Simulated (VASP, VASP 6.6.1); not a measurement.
# Lattice constants of white tin with PBEsol: a close a axis and a slightly flattened cell

## What was measured

The reference is the cell of white (β) tin obtained by powder X-ray diffraction with Rietveld refinement, from "Impact of Surface Chemistry of Silicon Nanoparticles on the Structural and Electrochemical Properties of Si/Ni3.4Sn4 Com-posite Anode for Li-Ion Batteries" (2021, arXiv:2101.01560). The tin was not an isolated sample: it is a crystalline phase that formed in a composite powder milled for 20 h with bare silicon, with crystallites of 27 nm. Strain or dissolved foreign atoms could in principle shift the cell of such a phase. The starting structure, a separate published refinement with a = 5.831 Å and c = 3.181 Å, differs from it by only about 0.001 Å on either axis, which speaks against a large shift. The temperature is not given with the values; room temperature is presumed here.

| compared with | measured | method |
| --- | --- | --- |
| lattice constant a of the conventional cell (Å) | 5.8303 ± 0.0002 | powder XRD, Rietveld |
| lattice constant c of the conventional cell (Å) | 3.1822 ± 0.0001 | powder XRD, Rietveld |

Conditions are those given with the value in the passage it was taken from; "not stated" means there, and the paper may say more elsewhere. The values are a selection: others may have been left out beforehand as unlike or outlying.

## Approach

The aim is to reproduce both axes of the tetragonal cell, each within 1 %. That limit is narrow enough to expose the over- or underbinding common among simple functionals, yet leaves room for the thermal expansion that a static calculation omits. For this soft metal the expansion up to room temperature is roughly half a per cent in length, about twice as much along c as along a, so a sound static cell should come out slightly small.

The model is the primitive cell with two atoms, non-magnetic and without spin-orbit coupling, started from the diffraction cell stretched by 3 % in volume and relaxed with its symmetry kept. PBEsol is the natural first choice for the equilibrium volume of a dense metal. LDA is passed over because it tends to make such cells too small, and PBE is not the starting point because it tends to make those of heavier p-block metals too large. Economising on the k mesh would be a poor saving: the Fermi surface of white tin is intricate, and the axial ratio responds to how it is sampled. The PBEsol cell is therefore tested for mesh and cutoff first, and a neighbouring functional is then set beside it for scale.

System: Sn, space group I4_1/amd (Tin); I4_1/amd (No. 141), 2 atoms in the cell; conventional a = 5.831, c = 3.181 A, from a published structure refinement (COD).

On the selection of runs and values: 3 further cited values are not listed: repeats, values quoted from earlier work, more than five for one quantity or six quantities, or quantities that fewer than three runs give.

## 1. PBEsol with denser mesh and higher cutoff

Three relaxations belong together here: a base run at 450 eV with a 16×16×16 mesh, one with a denser mesh at the same cutoff, and one with a higher cutoff at the same mesh. Each tests one setting separately. Both axes are expected slightly below the measured ones, with changes between the three runs far smaller than the 1 % limit.

**Run 1.** VASP 6.6.1: PBEsol; 450 eV, 16x16x16 k mesh; cell and atoms relaxed, relaxed twice.

Key lines of the input:
```
ALGO = Normal
EDIFF = 1E-06
EDIFFG = -0.006
ENCUT = 450
GGA = PS
IBRION = 2
ISIF = 3
ISMEAR = 1
NBANDS = 20
NELM = 100
NSW = 50
PREC = Accurate
SIGMA = 0.15
KPOINTS: Gamma, 16 16 16
PAW data sets: Sn_d (PBE 64)
```

Command:
```
mpirun -np 4 vasp_std
```

Selected lines of the output:
```
  volume of cell :       53.74
```

Converged; 3.8 min on 4 cores of Intel Xeon Platinum 8259CL at 2.50GHz (Skylake/Cascade Lake), shared host.

**Run 2.** VASP 6.6.1: PBEsol; 450 eV, 22x22x22 k mesh; cell and atoms relaxed, relaxed twice.

Key lines of the input, as changed from run 1:
```diff
- KPOINTS: Gamma, 16 16 16
+ KPOINTS: Gamma, 22 22 22
```

Selected lines of the output:
```
  volume of cell :       53.75
```

Converged; 7.9 min of wall time.

**Run 3.** VASP 6.6.1: PBEsol; 600 eV, 16x16x16 k mesh; cell and atoms relaxed, relaxed twice.

Key lines of the input, as changed from run 1:
```diff
- ENCUT = 450
+ ENCUT = 600
```

Selected lines of the output:
```
  volume of cell :       53.74
```

Converged; 6.5 min of wall time.

| quantity | run 1 | run 2 | run 3 | measured |
| --- | --- | --- | --- | --- |
| lattice constant a of the conventional cell (Å) | 5.840 | 5.8385 | 5.8398 | 5.8303 ± 0.0002 |
| lattice constant c of the conventional cell (Å) | 3.1515 | 3.1534 | 3.1515 | 3.1822 ± 0.0001 |
| volume of the conventional cell (Å³) | 107.48 | 107.50 | 107.48 |  |
| space group at the end | I4_1/amd | I4_1/amd | I4_1/amd |  |
| pressure left at the end (GPa) | −0.0079 | −0.0076 | −0.0198 |  |

With the denser mesh, PBEsol gives a = 5.8385 Å, about 0.1 % above the measured value, and c = 3.1534 Å, 0.9 % below it. Both axes are inside the 1 % limit, a comfortably and c narrowly. Only c falls on the expected side; a was also expected to come out slightly short.

The k mesh and the cutoff do not account for this pattern. Raising the cutoff leaves c unchanged to the printed precision and moves a by 0.0002 Å. The denser mesh lengthens c by about 0.002 Å and shortens a by 0.0015 Å, while the cell volume hardly changes. Even if all of that is due to sampling, it is small beside the 0.0288 Å by which c still falls short. The discrepancy is mainly one of shape: the PBEsol cell is too flat, with an axial ratio about 1 % below the measured one.

## 2. PBE and r2SCAN for the axial ratio

The narrow result for c raises the question of whether the flattened cell is peculiar to PBEsol. PBE has the same gradient-corrected form but binds more weakly, so it should enlarge the cell and show whether the axial ratio changes with the volume. r2SCAN adds the kinetic-energy density and tests a different description of the bonding; no direction is predicted for its axial ratio. Both are run at 450 eV with the 16×16×16 mesh and are to be compared with the PBEsol run at those settings.

**Run 4.** VASP 6.6.1: PBE; 450 eV, 16x16x16 k mesh; cell and atoms relaxed, relaxed twice.

Key lines of the input, as changed from run 1:
```diff
- GGA = PS
+ GGA = PE
```

Selected lines of the output:
```
  volume of cell :       56.81
```

Converged; 4 min of wall time.

**Run 5.** VASP 6.6.1: r2SCAN; 450 eV, 16x16x16 k mesh; cell and atoms relaxed, LASPH on.

Key lines of the input, as changed from run 1:
```diff
- GGA = PS
+ LASPH = .TRUE.
+ METAGGA = R2SCAN
```

Selected lines of the output:
```
  volume of cell :       55.18
```

Converged; 11 min of wall time.

| quantity | run 4 | run 5 | measured |
| --- | --- | --- | --- |
| lattice constant a of the conventional cell (Å) | 5.9469 | 5.8860 | 5.8303 ± 0.0002 |
| lattice constant c of the conventional cell (Å) | 3.2128 | 3.1853 | 3.1822 ± 0.0001 |
| volume of the conventional cell (Å³) | 113.62 | 110.35 |  |
| space group at the end | I4_1/amd | I4_1/amd |  |
| pressure left at the end (GPa) | 0.0040 | 0.0172 |  |

PBE enlarges the cell, as anticipated, but too far: a is 2.0 % above the measured value and misses the limit, while c, just under 1 % too long, passes narrowly. r2SCAN places c within 0.1 % of experiment, but its a is 0.96 % too long, again a narrow pass. Neither margin is wide enough to rank levels on, and the mesh and cutoff tests made with PBEsol do not carry over to these two functionals.

The flattened shape is not peculiar to PBEsol. The ratio c/a is 0.540 with PBE and 0.541 with r2SCAN, against 0.546 measured and 0.540 with PBEsol at the same settings. The three functionals thus differ mainly in volume and share an axial ratio about 1 % too small. The close agreement of c with r2SCAN therefore comes from a cell that is too large overall and too flat, two errors that cancel along this axis. An error of the reference is an unlikely explanation, since the separate refinement used for the starting cell has nearly the same axial ratio. These runs do not identify the cause of the common flattening.

## All runs against the measurement

| run | settings | lattice constant a of the conventional cell (Å) | deviation | lattice constant c of the conventional cell (Å) | deviation | cost |
| --- | --- | --- | --- | --- | --- | --- |
| 1 | PBEsol, 450 eV, 16x16x16 k mesh, relaxed twice | 5.840 | +0.010 (+0.2 %) | 3.1515 | −0.0307 (−1.0 %) | 15 core-min |
| 2 | PBEsol, 450 eV, 22x22x22 k mesh, relaxed twice | 5.8385 | +0.0082 (+0.1 %) | 3.1534 | −0.0288 (−0.9 %) | 32 core-min |
| 3 | PBEsol, 600 eV, 16x16x16 k mesh, relaxed twice | 5.8398 | +0.0095 (+0.2 %) | 3.1515 | −0.0307 (−1.0 %) | 26 core-min |
| 4 | PBE, 450 eV, 16x16x16 k mesh, relaxed twice | 5.9469 | +0.1166 (+2.0 %) | 3.2128 | +0.0306 (+1.0 %) | 16 core-min |
| 5 | r2SCAN, 450 eV, 16x16x16 k mesh, LASPH on | 5.8860 | +0.0557 (+1.0 %) | 3.1853 | +0.0031 (+0.1 %) | 43 core-min |
|  | measured | 5.8303 ± 0.0002 |  | 3.1822 ± 0.0001 |  |  |

The runs in order, against the measurement:

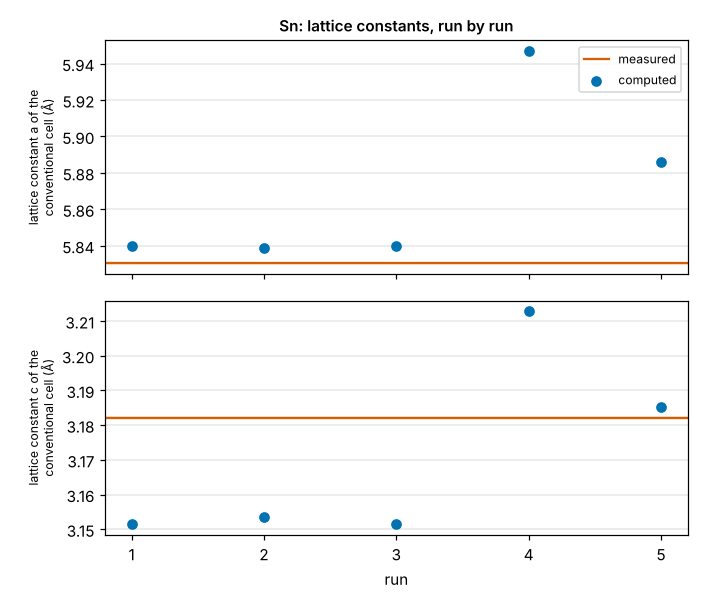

Further runs on the same system, made beside this series (convergence steps with loose settings among them):

| further | settings | lattice constant a of the conventional cell (Å) | deviation | lattice constant c of the conventional cell (Å) | deviation | cost |
| --- | --- | --- | --- | --- | --- | --- |
| F1 | r2SCAN + rVV10, 450 eV, 16x16x16 k mesh, relaxed twice, LASPH on | 5.8585 | +0.0282 (+0.5 %) | 3.1681 | −0.0141 (−0.4 %) | 1.8 core-h |
| F2 | optB86b-vdW, 450 eV, 16x16x16 k mesh, LASPH on | 5.8985 | +0.0682 (+1.2 %) | 3.1865 | +0.0043 (+0.1 %) | 36 core-min |
| F3 | TPSS, 450 eV, 16x16x16 k mesh, LASPH on | 5.8884 | +0.0581 (+1.0 %) | 3.1846 | +0.0024 (+0.1 %) | 35 core-min |
| F4 | PBEsol + D3(BJ), 450 eV, 16x16x16 k mesh, relaxed twice | 5.7585 | −0.0718 (−1.2 %) | 3.1060 | −0.0762 (−2.4 %) | 20 core-min |
| F5 | LDA, 450 eV, 16x16x16 k mesh, relaxed twice | 5.7896 | −0.0408 (−0.7 %) | 3.1243 | −0.0579 (−1.8 %) | 19 core-min |
| F6 | PBEsol, 240 eV, 16x16x16 k mesh, relaxed twice | 5.8137 | −0.0166 (−0.3 %) | 3.1384 | −0.0438 (−1.4 %) | 8.9 core-min |
| F7 | PBEsol, 450 eV, 9x9x9 k mesh, relaxed twice | 5.8370 | +0.0067 (+0.1 %) | 3.1576 | −0.0246 (−0.8 %) | 5 core-min |
|  | measured | 5.8303 ± 0.0002 |  | 3.1822 ± 0.0001 |  |  |

## Conclusion

PBEsol meets the target on both axes, but only narrowly on c. At 450 eV with the 22×22×22 mesh, a is 0.1 % too long and c 0.9 % too short, for 32 core-minutes. The change in c between the two denser meshes is comparable with the margin left to the limit, so the pass on c is not robust. The higher cutoff hardly moved the cell. The 9×9×9 mesh brings c closer to experiment, but that is chance, since c does not approach its denser-mesh values steadily.

The near-perfect a hides an error of shape. All functionals shown give an axial ratio about 1 % too small, although their volumes differ widely. Thermal expansion accounts for part of this: it is larger along c, and up to room temperature should raise the ratio by a few tenths of a per cent. Allowing for it would bring the PBEsol c closer to experiment but make a too long by roughly half a per cent. The rest of the flattening is unexplained; the effects of spin-orbit coupling and of the smearing width are not shown in this report.

The comparison runs put the choice of PBEsol in perspective. PBE makes a 2.0 % too long, LDA makes c 1.8 % too short, and adding D3(BJ) to PBEsol contracts the cell too far. r2SCAN and TPSS pass narrowly on a, and allowing for expansion would take both past the limit. r2SCAN + rVV10 is within about half a per cent on both axes, a more even agreement than PBEsol gives, though expansion would take its a close to the limit. PBEsol is thus a serviceable level for the cell of white tin, but these results do not establish it as the best one.

[Logs are printed without paths, hosts, clocks, repeated set-up lines and the standing remarks that a program may print on its own settings, such as how far it seeks lower states.]

[The runs shown are a pick from a larger set of finished runs; failed, doubtful and other runs were left out of it ahead of writing. So were measured values far from every level or from commonly accepted values, and agreement can look better than it is. Lines of input and output are excerpts and may be shortened.]
